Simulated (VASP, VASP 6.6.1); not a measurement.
# Lattice constant of fcc palladium: PBEsol and PBE against neutron powder diffraction

## Experiment

The reference is the room-temperature lattice constant of deuterium-free palladium, a = 3.89027 ± 0.00003 Å at 293.15 K, from "Dislocation healing during hydrogen absorption and desorption in palladium" (2022, arXiv:2204.14071). It was obtained by time-of-flight neutron powder diffraction on commercial 99.95% Pd powder, with the d-spacing scale calibrated against a NIST 640c silicon standard. The absence of deuterium matters, because palladium readily takes up hydrogen and its lattice expands when it does. The value is not corrected for thermal expansion, and it also contains the zero-point motion of the nuclei. Our calculations treat static nuclei at zero temperature, so a perfect functional should land slightly below the measured number, by roughly 0.2 to 0.4 %.

| compared with | measured | source's wording or label | T (K) | method |
| --- | --- | --- | --- | --- |
| lattice constant a of the conventional cell (Å) | 3.89027 ± 0.00003 | a of deuterium-free Pd at 20 C | 293.15 | time-of-flight neutron powder diffraction |

Conditions are those given with the value in the passage it was taken from; "not stated" means there, and the paper may say more elsewhere.

## Plan

We want the equilibrium lattice constant of fcc palladium to within 1 % of the measured value. That limit is wider than the thermal and zero-point shift, yet about as large as the usual errors of LDA and PBE for a 4d metal, so it asks something of the functional.

The model is the primitive cell with one atom, relaxed in volume with the cubic symmetry kept. We treat it without spin polarisation: palladium is a paramagnet close to a ferromagnetic instability, and some functionals wrongly give it a moment. The starting cell is the diffraction cell with a = 3.890 Å, which agrees with the reference, stretched by 3 % in volume so that the relaxation has to find its own way back.

We go directly to PBEsol, a gradient functional built for the equilibrium volumes of dense solids. LDA usually makes such metals too small and PBE too large, and neither is much cheaper for one atom. The result is then to be tested for k mesh and cutoff, and one neighbouring functional set beside it for scale.

System: Pd, space group Fm-3m (Palladium); Fm-3m (No. 225), 1 atom in the cell; conventional a = 3.890 A, from a published structure refinement (COD).

On the selection of runs and values: 1 further cited values are not listed: repeats, values quoted from earlier work, more than five for one quantity or six quantities, optical onsets of an indirect gap, modes that a denser mesh moves by over 3 %, or quantities that fewer than three runs give.

## 1. PBEsol on a dense k mesh

Palladium has a high and sharply varying density of states at the Fermi level, so we start with a 20×20×20 mesh instead of a coarse one. The cell is relaxed twice, so that the second relaxation starts with a basis set matched to the nearly final volume. We expect a lattice constant slightly below the measured one.

**Run 1.** VASP 6.6.1: PBEsol; 450 eV, 20x20x20 k mesh; cell and atoms relaxed, relaxed twice.

Key lines of the input:
```
ALGO = Normal
EDIFF = 1E-06
EDIFFG = -0.006
ENCUT = 450
GGA = PS
IBRION = 2
ISIF = 3
ISMEAR = 1
NBANDS = 11
NELM = 100
NSW = 50
PREC = Accurate
SIGMA = 0.15
KPOINTS: Gamma, 20 20 20
PAW data sets: Pd (PBE 64)
```

Command:
```
mpirun -np 4 vasp_std
```

Selected lines of the output:
```
   1 F= -.59429635E+01 E0= -.59419198E+01  d E =-.594296E+01
   2 F= -.59157828E+01 E0= -.59152816E+01  d E =0.271808E-01
   3 F= -.59591484E+01 E0= -.59583325E+01  d E =-.161849E-01
   4 F= -.59591524E+01 E0= -.59583411E+01  d E =-.161888E-01
[second pass]
   1 F= -.59590691E+01 E0= -.59582576E+01  d E =-.595907E+01
 reached required accuracy - stopping structural energy minimisation
  external PRESSURE =       0.1713097 kB  Pullay stress =       0.0000000 kB
  volume of cell :       14.52
      direct lattice vectors                 reciprocal lattice vectors
     0.000000000  1.936263118  1.936263118    -0.258229367  0.258229367  0.258229367
     1.936263118  0.000000000  1.936263118     0.258229367 -0.258229367  0.258229367
     1.936263118  1.936263118  0.000000000     0.258229367  0.258229367 -0.258229367
```

Converged; 12 s on 4 cores of Intel Xeon 6975P-C (Granite Rapids), shared host (all steps together).

| quantity | run 1 | measured | deviation |
| --- | --- | --- | --- |
| lattice constant a of the conventional cell (Å) | 3.8725 | 3.89027 ± 0.00003 | −0.0177 (−0.5 %) |
| volume of the conventional cell (Å³) | 58.07 |  |  |
| space group at the end | Fm-3m |  |  |
| pressure left at the end (GPa) | 0.0171 |  |  |

PBEsol gives a = 3.8725 Å, 0.5 % below the measured value and inside the 1 % limit. The deviation has the sign we anticipated for a static lattice. The second relaxation stopped at its first step with little pressure left, so the volume is settled for this basis and mesh; whether the basis and mesh themselves suffice is a separate question.

## 2. Denser mesh and higher cutoff

We repeat the PBEsol relaxation twice, once with a 28×28×28 mesh and once with the cutoff raised to 600 eV, changing one setting at a time. The mesh tests the sampling of the Fermi surface, the cutoff the basis-set error in the stress that drives the cell. We expect both shifts to be small against the 0.5 % deviation.

**Run 2.** VASP 6.6.1: PBEsol; 450 eV, 28x28x28 k mesh; cell and atoms relaxed, relaxed twice.

Key lines of the input, as changed from run 1:
```diff
- KPOINTS: Gamma, 20 20 20
+ KPOINTS: Gamma, 28 28 28
```

Selected lines of the output:
```
     0.000000000  1.936573643  1.936573643    -0.258187961  0.258187961  0.258187961
```

Converged; 27 s, same machine (all steps together).

**Run 3.** VASP 6.6.1: PBEsol; 600 eV, 20x20x20 k mesh; cell and atoms relaxed, relaxed twice.

Key lines of the input, as changed from run 1:
```diff
- ENCUT = 450
+ ENCUT = 600
```

Selected lines of the output:
```
   1 F= -.59434106E+01 E0= -.59423665E+01  d E =-.594341E+01
   2 F= -.59149420E+01 E0= -.59144476E+01  d E =0.284686E-01
   3 F= -.59600544E+01 E0= -.59592408E+01  d E =-.166438E-01
   4 F= -.59600590E+01 E0= -.59592501E+01  d E =-.166484E-01
[second pass]
   1 F= -.59596148E+01 E0= -.59588058E+01  d E =-.595961E+01
 reached required accuracy - stopping structural energy minimisation
  external PRESSURE =       0.1330758 kB  Pullay stress =       0.0000000 kB
  volume of cell :       14.51
      direct lattice vectors                 reciprocal lattice vectors
     0.000000000  1.935926649  1.935926649    -0.258274248  0.258274248  0.258274248
     1.935926649  0.000000000  1.935926649     0.258274248 -0.258274248  0.258274248
     1.935926649  1.935926649  0.000000000     0.258274248  0.258274248 -0.258274248
```

Converged; 15 s, same machine (all steps together).

| quantity | run 2 | run 3 | measured |
| --- | --- | --- | --- |
| lattice constant a of the conventional cell (Å) | 3.8731 | 3.8718 | 3.89027 ± 0.00003 |
| volume of the conventional cell (Å³) | 58.10 | 58.04 |  |
| space group at the end | Fm-3m | Fm-3m |  |
| pressure left at the end (GPa) | 0.0246 | 0.0133 |  |

The denser mesh moves the PBEsol lattice constant from 3.8725 to 3.8731 Å, and the higher cutoff moves it to 3.8718 Å. Both changes are below 0.001 Å, far smaller than the 0.0177 Å separating the first result from experiment. Neither mesh nor cutoff therefore explains the deviation, and PBEsol stays well within the 1 % limit in all three runs.

## 3. PBE for scale

As the neighbouring level we take PBE, the common default for metals, at 450 eV and on the 20×20×20 mesh, so that it compares directly with the first PBEsol run. We expect it to overshoot the measured value and to end near the 1 % limit. The static lattice should lie below the room-temperature one, so an overshoot would be a larger functional error than the plain deviation suggests.

**Run 4.** VASP 6.6.1: PBE; 450 eV, 20x20x20 k mesh; cell and atoms relaxed.

Key lines of the input, as changed from run 1:
```diff
- GGA = PS
+ GGA = PE
```

Selected lines of the output:
```
DAV:   4    -0.521448498435E+01   -0.41913E-04   -0.19846E-04  6772   0.102E-01    0.109E-02
DAV:   5    -0.521448483855E+01    0.14580E-06   -0.21028E-06  6884   0.121E-02
   3 F= -.52144848E+01 E0= -.52133389E+01  d E =-.629673E-03
 reached required accuracy - stopping structural energy minimisation
  external PRESSURE =      -0.2682123 kB  Pullay stress =       0.0000000 kB
  volume of cell :       15.29
      direct lattice vectors                 reciprocal lattice vectors
    -0.000000000  1.969918788  1.969918788    -0.253817570  0.253817570  0.253817570
     1.969918788  0.000000000  1.969918788     0.253817570 -0.253817570  0.253817570
     1.969918788  1.969918788 -0.000000000     0.253817570  0.253817570 -0.253817570
```

Converged; 7.2 s, same machine.

| quantity | run 4 | measured | deviation |
| --- | --- | --- | --- |
| lattice constant a of the conventional cell (Å) | 3.9398 | 3.89027 ± 0.00003 | +0.0496 (+1.3 %) |
| volume of the conventional cell (Å³) | 61.16 |  |  |
| space group at the end | Fm-3m |  |  |
| pressure left at the end (GPa) | −0.0268 |  |  |

PBE gives a = 3.9398 Å, 1.3 % above the measured value, and misses the 1 % limit. The overshoot we expected is there, somewhat larger than we had guessed. At the same cutoff and mesh, PBE lies 0.0673 Å above PBEsol, so the choice between these two gradient functionals matters far more than the mesh and cutoff changes tested with PBEsol. The PBE cell was relaxed only once, but it started from a volume close to its final one and little pressure is left. Mesh and cutoff were not varied for PBE itself.

## Summary of runs

| run | settings | lattice constant a of the conventional cell (Å) | deviation | cost |
| --- | --- | --- | --- | --- |
| 1 | PBEsol, 450 eV, 20x20x20 k mesh, relaxed twice | 3.8725 | −0.0177 (−0.5 %) | under 1 core-min |
| 2 | PBEsol, 450 eV, 28x28x28 k mesh, relaxed twice | 3.8731 | −0.0171 (−0.4 %) | 1.8 core-min |
| 3 | PBEsol, 600 eV, 20x20x20 k mesh, relaxed twice | 3.8718 | −0.0184 (−0.5 %) | 61 core-s |
| 4 | PBE, 450 eV, 20x20x20 k mesh | 3.9398 | +0.0496 (+1.3 %) | under 1 core-min |
|  | measured | 3.89027 ± 0.00003 |  |  |

The runs in order, against the measurement:

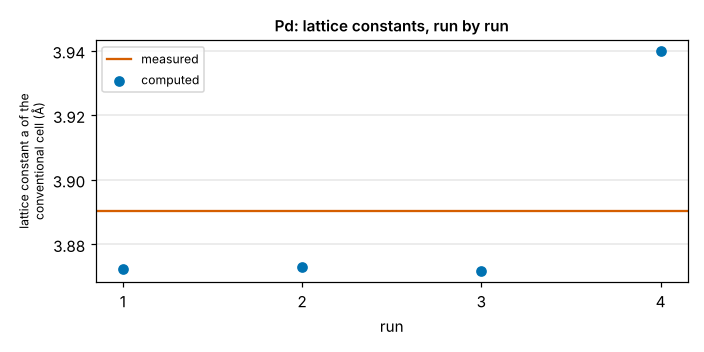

## Verdict

PBEsol meets the 1 % target: it gives a = 3.8725 Å, 0.5 % below the neutron diffraction value, for under one core-minute. PBE, at the same cutoff and mesh, comes out 1.3 % too large and misses.

The denser mesh and the higher cutoff each moved the PBEsol result by less than 0.001 Å, so the pass does not hang on either setting. The PBE run showed how much depends on the functional.

The measured lattice is expanded by temperature and zero-point motion, which our static calculation leaves out. Our rough allowance of 0.2 to 0.4 % has the right sign and would account for a good part of the PBEsol deviation, leaving the computed lattice about 0.1 to 0.3 % too small. For PBE the same allowance works the other way and raises the error to roughly 1.5 to 1.7 %. The better agreement of PBEsol is therefore not produced by the neglected nuclear motion; taking that motion into account favours PBEsol further.

We cannot assign the remaining PBEsol difference to a single cause. An error of the functional itself is plausible at this size. The calculations also omitted the non-spherical gradient terms inside the PAW spheres, which can matter for a d metal, and used PAW data sets generated with PBE; the effect of neither was tested. Residual hydrogen in the sample is an unlikely explanation, since the powder was deuterium-free and the reference agrees with the separate diffraction cell from which we started. All runs were non-spin-polarised, so they do not show whether either functional would wrongly give palladium a magnetic moment.

[Logs are printed without paths, hosts, clocks, repeated set-up lines and the standing remarks that a program may print on its own settings, such as how far it seeks lower states.]

[The runs shown are a pick from a larger set of finished runs; failed, doubtful and other runs were left out of it ahead of writing. So were measured values far from every level or from commonly accepted values, and agreement can look better than it is. Lines of input and output are excerpts and may be shortened.]
